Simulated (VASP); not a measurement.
# Normal strain, stress and strain energy of fcc Al under biaxial (111) strain, PBEsol

The usual rule of thumb is that a metal film strained in its plane by a percent or two obeys linear elasticity: it thins in fixed proportion to the stretch, and its stress follows from one biaxial modulus. For aluminium layers with (111) texture, that rule turns a measured change in layer spacing into a film stress. We test it on a static Al crystal, with PBEsol, for in-plane strains from −2 % to +2 %. Strains and energies are measured from the crystal relaxed with the same functional, and the stress along the normal is zero throughout. The questions are which moduli follow from the small strains and where proportionality fails.

## Computational details

The start is an entry of the ASE's table of reference states database. The crystal was relaxed with PBEsol. Equal strain is imposed in the (111) plane; the strain along the normal is adjusted until the normal stress vanishes, and the atoms are relaxed with PBEsol. VASP 6.6.1, plane waves with PAW, cutoff 450 eV, no spin polarisation, no spin-orbit coupling, k mesh 25×25×25, static lattice. The same in all rows: band gap on the k mesh at PBEsol: 0.000 eV.

Notes on method and selection:

- Runs that did not converge, have known faults or may not be shown are not listed, and runs on Ansatz's PAW sets soft_1 and soft_2 are kept to separate tables.

Columns:

- strain (%): strain in the plane (tension positive).
- normal strain (%): strain along the normal.
- stress (GPa): in-plane stress, tension positive.
- strain energy (meV/atom): energy per atom above the relaxed crystal.

## The series

| member | strain (%) | normal strain (%) | stress (GPa) | strain energy (meV/atom) |
| --- | --- | --- | --- | --- |
| −2 % | −2.0 | 1.685 | −3.35 | 6.74 |
| −1.5 % | −1.5 | ? | ? | ? |
| −1 % | −1.0 | 0.786 | −1.64 | 1.70 |
| −0.5 % | −0.5 | 0.387 | −0.80 | 0.41 |
| 0 % | 0.0 | 0.000 | 0.00 | 0.00 |
| +0.5 % | 0.5 | −0.371 | 0.75 | 0.37 |
| +1 % | 1.0 | ? | ? | ? |
| +1.5 % | 1.5 | −1.198 | 1.98 | 3.32 |
| +2 % | 2.0 | −1.688 | 2.43 | 5.53 |

Cells marked ? are withheld until the estimate has been made.

normal strain (%) against strain (%), members shown:

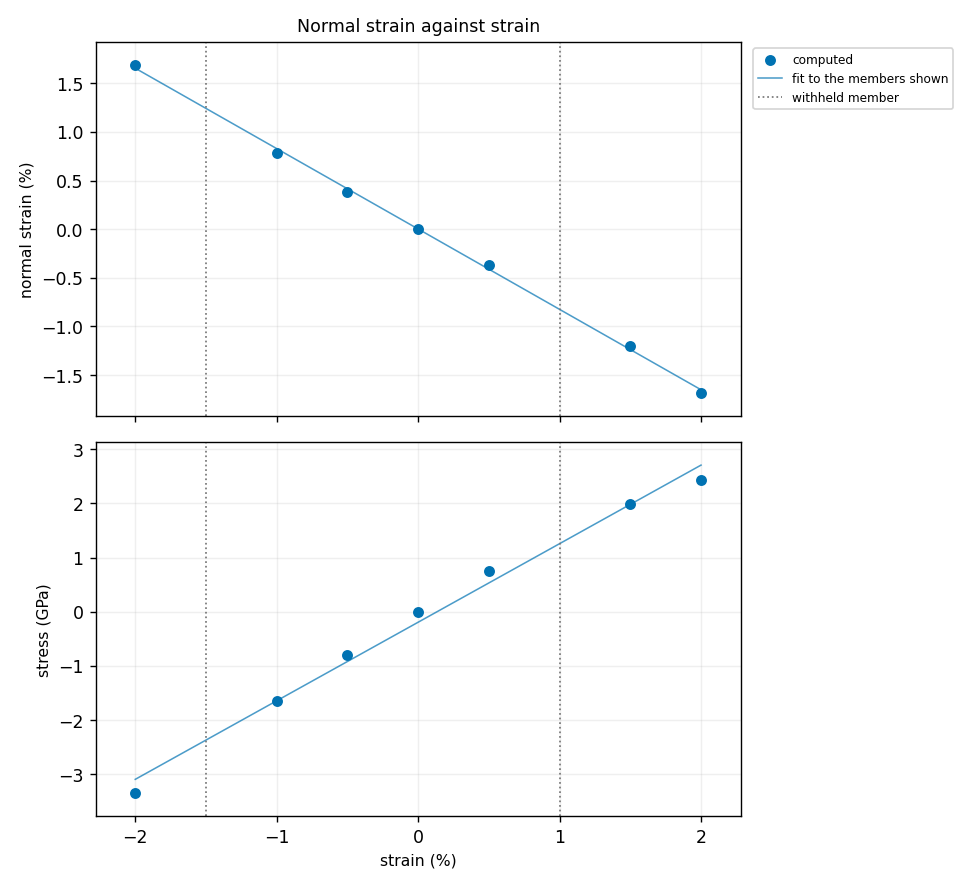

Least-squares fits to the members shown, with x = strain (%); R² and errors in the fitted variable (y, or ln y where the fit is in ln y):

| y | members | fit | R² | rms residual | leave-one-out rms | the same for the mean of the others |
| --- | --- | --- | --- | --- | --- | --- |
| normal strain (%) | 7 | y = 0.002021 − 0.8263 x | 1.00 | 0.034 | 0.051 | 1.2 |
| stress (GPa) | 7 | y = −0.1936 + 1.450 x | 0.99 | 0.19 | 0.31 | 2.2 |

## The trend and its physics

Stretching the plane thins the crystal along the normal, and compression thickens it. Between −0.5 % and +0.5 % the normal strain changes by −(0.387 + 0.371) / 1.0 = −0.758 per unit of in-plane strain. The stress gives a biaxial modulus $M$ of (0.75 + 0.80) / 0.010 = 155 GPa.

For a cubic crystal strained in (111), with bulk modulus $B$ and shear constant $C_{44}$,

$$-\frac{\varepsilon_\perp}{\varepsilon_\parallel}=\frac{2(3B-2C_{44})}{3B+4C_{44}},\qquad M=\frac{18\,B\,C_{44}}{3B+4C_{44}}.$$

The two slopes give $B$ ≈ 83 GPa and $C_{44}$ ≈ 44 GPa. The bulk modulus is of the expected size, but the shear constant is high for aluminium. Shear constants of this metal are sensitive to k mesh and smearing, because strain shifts small pieces of the Fermi surface, so we would check those settings before using the value.

The stress departs from proportionality mainly in tension. Stress divided by strain is 3.35 / 0.020 = 168 GPa at −2 % and 2.43 / 0.020 = 122 GPa at +2 %, or 8 % above and 22 % below the small-strain modulus. This is the sign expected of anharmonic bonding, which stiffens as atoms approach and softens as they separate. The energy shows the same asymmetry, 6.74 against 5.53 meV/atom at the two ends.

The normal strain behaves differently. Its ratio to the in-plane strain grows in size to about 0.84 at both ends, 11 % above the small-strain value. The lowest anharmonic term would raise the ratio on one side and lower it on the other, so a higher-order term or a sampling error near zero strain is the likelier origin.

Linear elasticity therefore holds to about 3 % in stress at ±0.5 %, but is a poor approximation for the stress at +1.5 % and beyond.

## Estimating the withheld member

Plain estimates from the members shown:

- +1 %, fit at x = 1.0: −0.824 %
- +1 %, straight-line interpolation between +0.5 % and +1.5 %: w = (1.0 − 0.5) / (1.5 − 0.5) = 0.500, so −0.371 + 0.500 × (−1.198 − (−0.371)) = −0.784 %
- −1.5 %, fit at x = −1.5: 1.241 %
- −1.5 %, straight-line interpolation between −2 % and −1 %: w = (−1.5 − (−2.0)) / (−1.0 − (−2.0)) = 0.500, so 1.685 + 0.500 × (0.786 − 1.685) = 1.236 %

The straight-line fit misses the curvature, and interpolation between two neighbours cuts across it. Both plain estimates should therefore be too large in size. We instead pass a cubic through the four nearest members on the same side, the unstrained crystal included. No separate shift for internal relaxation is needed, since the single atom in the cell has no free coordinate.

For +1 %, the members at 0, +0.5, +1.5 and +2 % give

[4 × (−0.371) + 4 × (−1.198) − (−1.688) − 0] / 6 = −0.765 %.

For −1.5 %, the members at −2, −1, −0.5 and 0 % give

0.25 × 1.685 + 1.5 × 0.786 − 0.387 = 1.213 %.

We tried the same kind of cubic on two shown members, leaving each out in turn. From −2, −0.5, 0 and +0.5 % it gives 0.1 × 1.685 + 2 × 0.387 + 0.4 × (−0.371) = 0.794 % at −1 %, against 0.786 % in the table. From −0.5, 0, +0.5 and +2 % it gives 0.6 × 0.387 + 2 × (−0.371) + 0.4 × (−1.688) = −1.185 % at +1.5 %, against −1.198 %. The misses are 0.008 and 0.013, with a root mean square of 0.011, which we take as one standard deviation for both estimates.

**Committed estimate, +1 %: normal strain = −0.765 ± 0.011 %.**  
**Committed estimate, −1.5 %: normal strain = 1.213 ± 0.011 %.**

## How the estimate fared

| member | strain (%) | normal strain (%) | stress (GPa) | strain energy (meV/atom) |
| --- | --- | --- | --- | --- |
| −1.5 % | −1.5 | 1.223 | −2.49 | 3.81 |
| +1 % | 1.0 | −0.706 | 1.48 | 1.51 |

| member | estimate | normal strain (%) | computed | estimate − computed | miss in error bars |
| --- | --- | --- | --- | --- | --- |
| +1 % | committed | −0.765 | −0.706 | −0.059 | 5.4 |
| +1 % | fit | −0.824 | −0.706 | −0.118 |  |
| +1 % | interpolation | −0.784 | −0.706 | −0.079 |  |
| −1.5 % | committed | 1.213 | 1.223 | −0.010 | 0.9 |
| −1.5 % | fit | 1.241 | 1.223 | +0.018 |  |
| −1.5 % | interpolation | 1.236 | 1.223 | +0.012 |  |

normal strain (%) against strain (%):

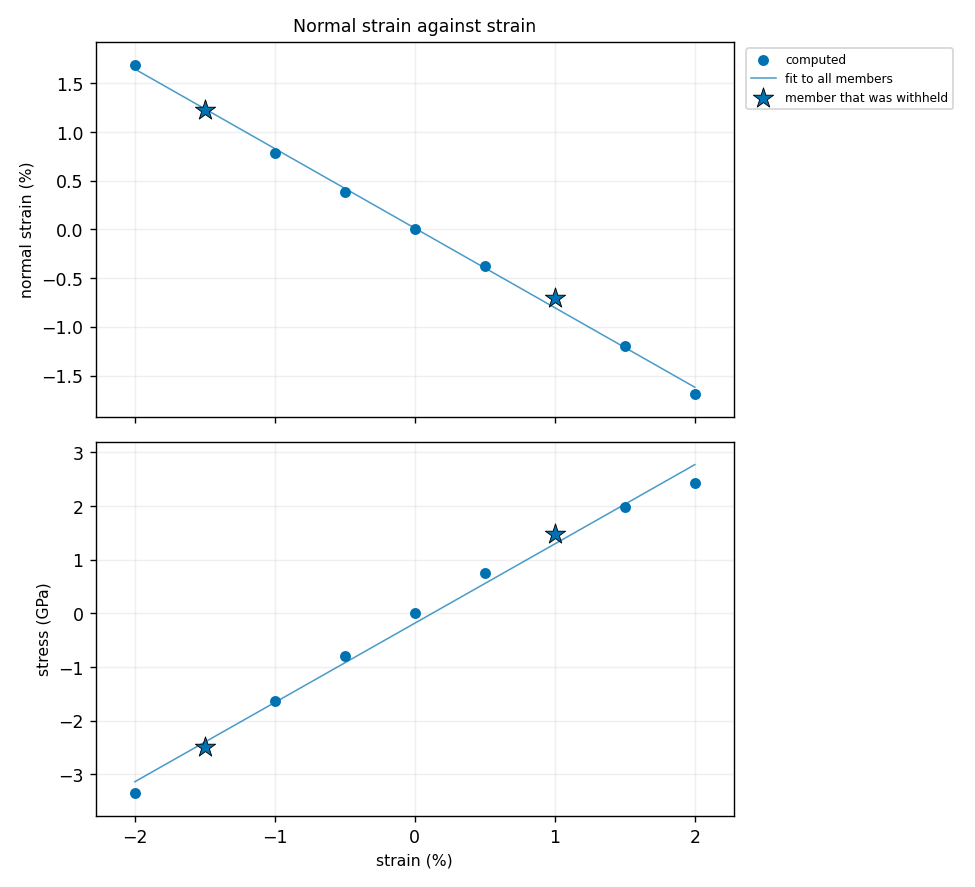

The estimate for −1.5 % is inside its error bar, at 1.213 against 1.223 %, and slightly better than both plain estimates. The one for +1 % is far outside, at −0.765 against −0.706 %, a miss of 5.4 error bars, though it is still nearer than the interpolation and the fit.

The argument that both plain estimates would be too large in size was right on both sides. What failed was the assumption that one smooth cubic describes the tensile side. The two trial members gave no warning of this, and the error bar drawn from them was much too small for tension.

The new rows also correct our reading of the ratio of normal to in-plane strain. We had put its odd behaviour down to a higher-order term or to sampling near zero strain. In fact its size falls steadily from 0.84 at −2 % to 0.71 at +1 %, as a leading anharmonic term would have it, and then jumps to 0.80 at +1.5 %. The irregularity lies between +1 and +1.5 %.

## Outliers

Least-squares fits to the whole series, with x = strain (%); R² and errors in the fitted variable (y, or ln y where the fit is in ln y):

| y | members | fit | R² | rms residual | leave-one-out rms | the same for the mean of the others |
| --- | --- | --- | --- | --- | --- | --- |
| normal strain (%) | 9 | y = 0.01311 − 0.8166 x | 1.00 | 0.047 | 0.063 | 1.2 |
| stress (GPa) | 9 | y = −0.1822 + 1.477 x | 0.99 | 0.18 | 0.26 | 2.2 |

Largest departures from the fit to the whole series:

| member | normal strain (%) | fit | computed − fit | in rms residuals |
| --- | --- | --- | --- | --- |
| +1 % | −0.706 | −0.803 | +0.097 | 2.1 |
| +2 % | −1.688 | −1.620 | −0.068 | 1.4 |
| −1 % | 0.786 | 0.830 | −0.044 | 0.9 |
| −2 % | 1.685 | 1.646 | +0.039 | 0.8 |

The +1 % member lies farthest from the line, 0.097 above it, and +2 % lies 0.068 below. Both departures come from a change of slope between +1 and +1.5 %. Over successive half-percent steps from +0.5 % the normal strain changes by about −0.34, −0.49 and −0.49 %, while the stress rises by 0.73, 0.50 and 0.45 GPa. The normal stress left at +1 % is far too small to account for its departure.

A drop in the resistance to shear would have both signs: by the formulas for (111) strain, a smaller $C_{44}$ gives more thinning and less stress. The likeliest origin is a small piece of the Fermi surface that appears, vanishes or is poorly sampled as the crystal is stretched. Smooth anharmonic softening, our first reading of the tensile stress, is therefore only part of the explanation. With one k mesh and one smearing, a real electronic effect and a sampling error look alike. The high shear constant found at small strain makes us suspect sampling first.

The departures at −1 and −2 %, −0.044 and +0.039, are smaller and reflect the smooth bend of the compressed branch, which a straight line cannot follow.

## Conclusions and limits

Up to ±1 %, stress divided by strain stays within about 6 % of the small-strain modulus of 155 GPa. At +2 % it is 22 % lower, so linear elasticity with this modulus overestimates the computed tension there. Part of that drop comes with the change of slope above +1 % and may be a sampling error.

A straight line estimates the normal strain of a left-out member to about 0.06 %, against 1.2 % for the mean of the others. Smooth interpolation did better in compression, but should not be carried across the change of slope in tension.

For small strains, 0.1 % of in-plane stretch gives 155 × 0.001 = 0.16 GPa of tension, and a layer spacing reduced by 0.1 % implies 155 × 0.001 / 0.758 = 0.20 GPa. Both are probably upper values, because the shear constant behind them looks too high.

The largest omission is plastic flow. Real aluminium films usually yield at some tenths of a GPa, well below the 2.43 GPa computed at +2 %, so the outer rows describe a defect-free crystal and not the stress that a film would carry.
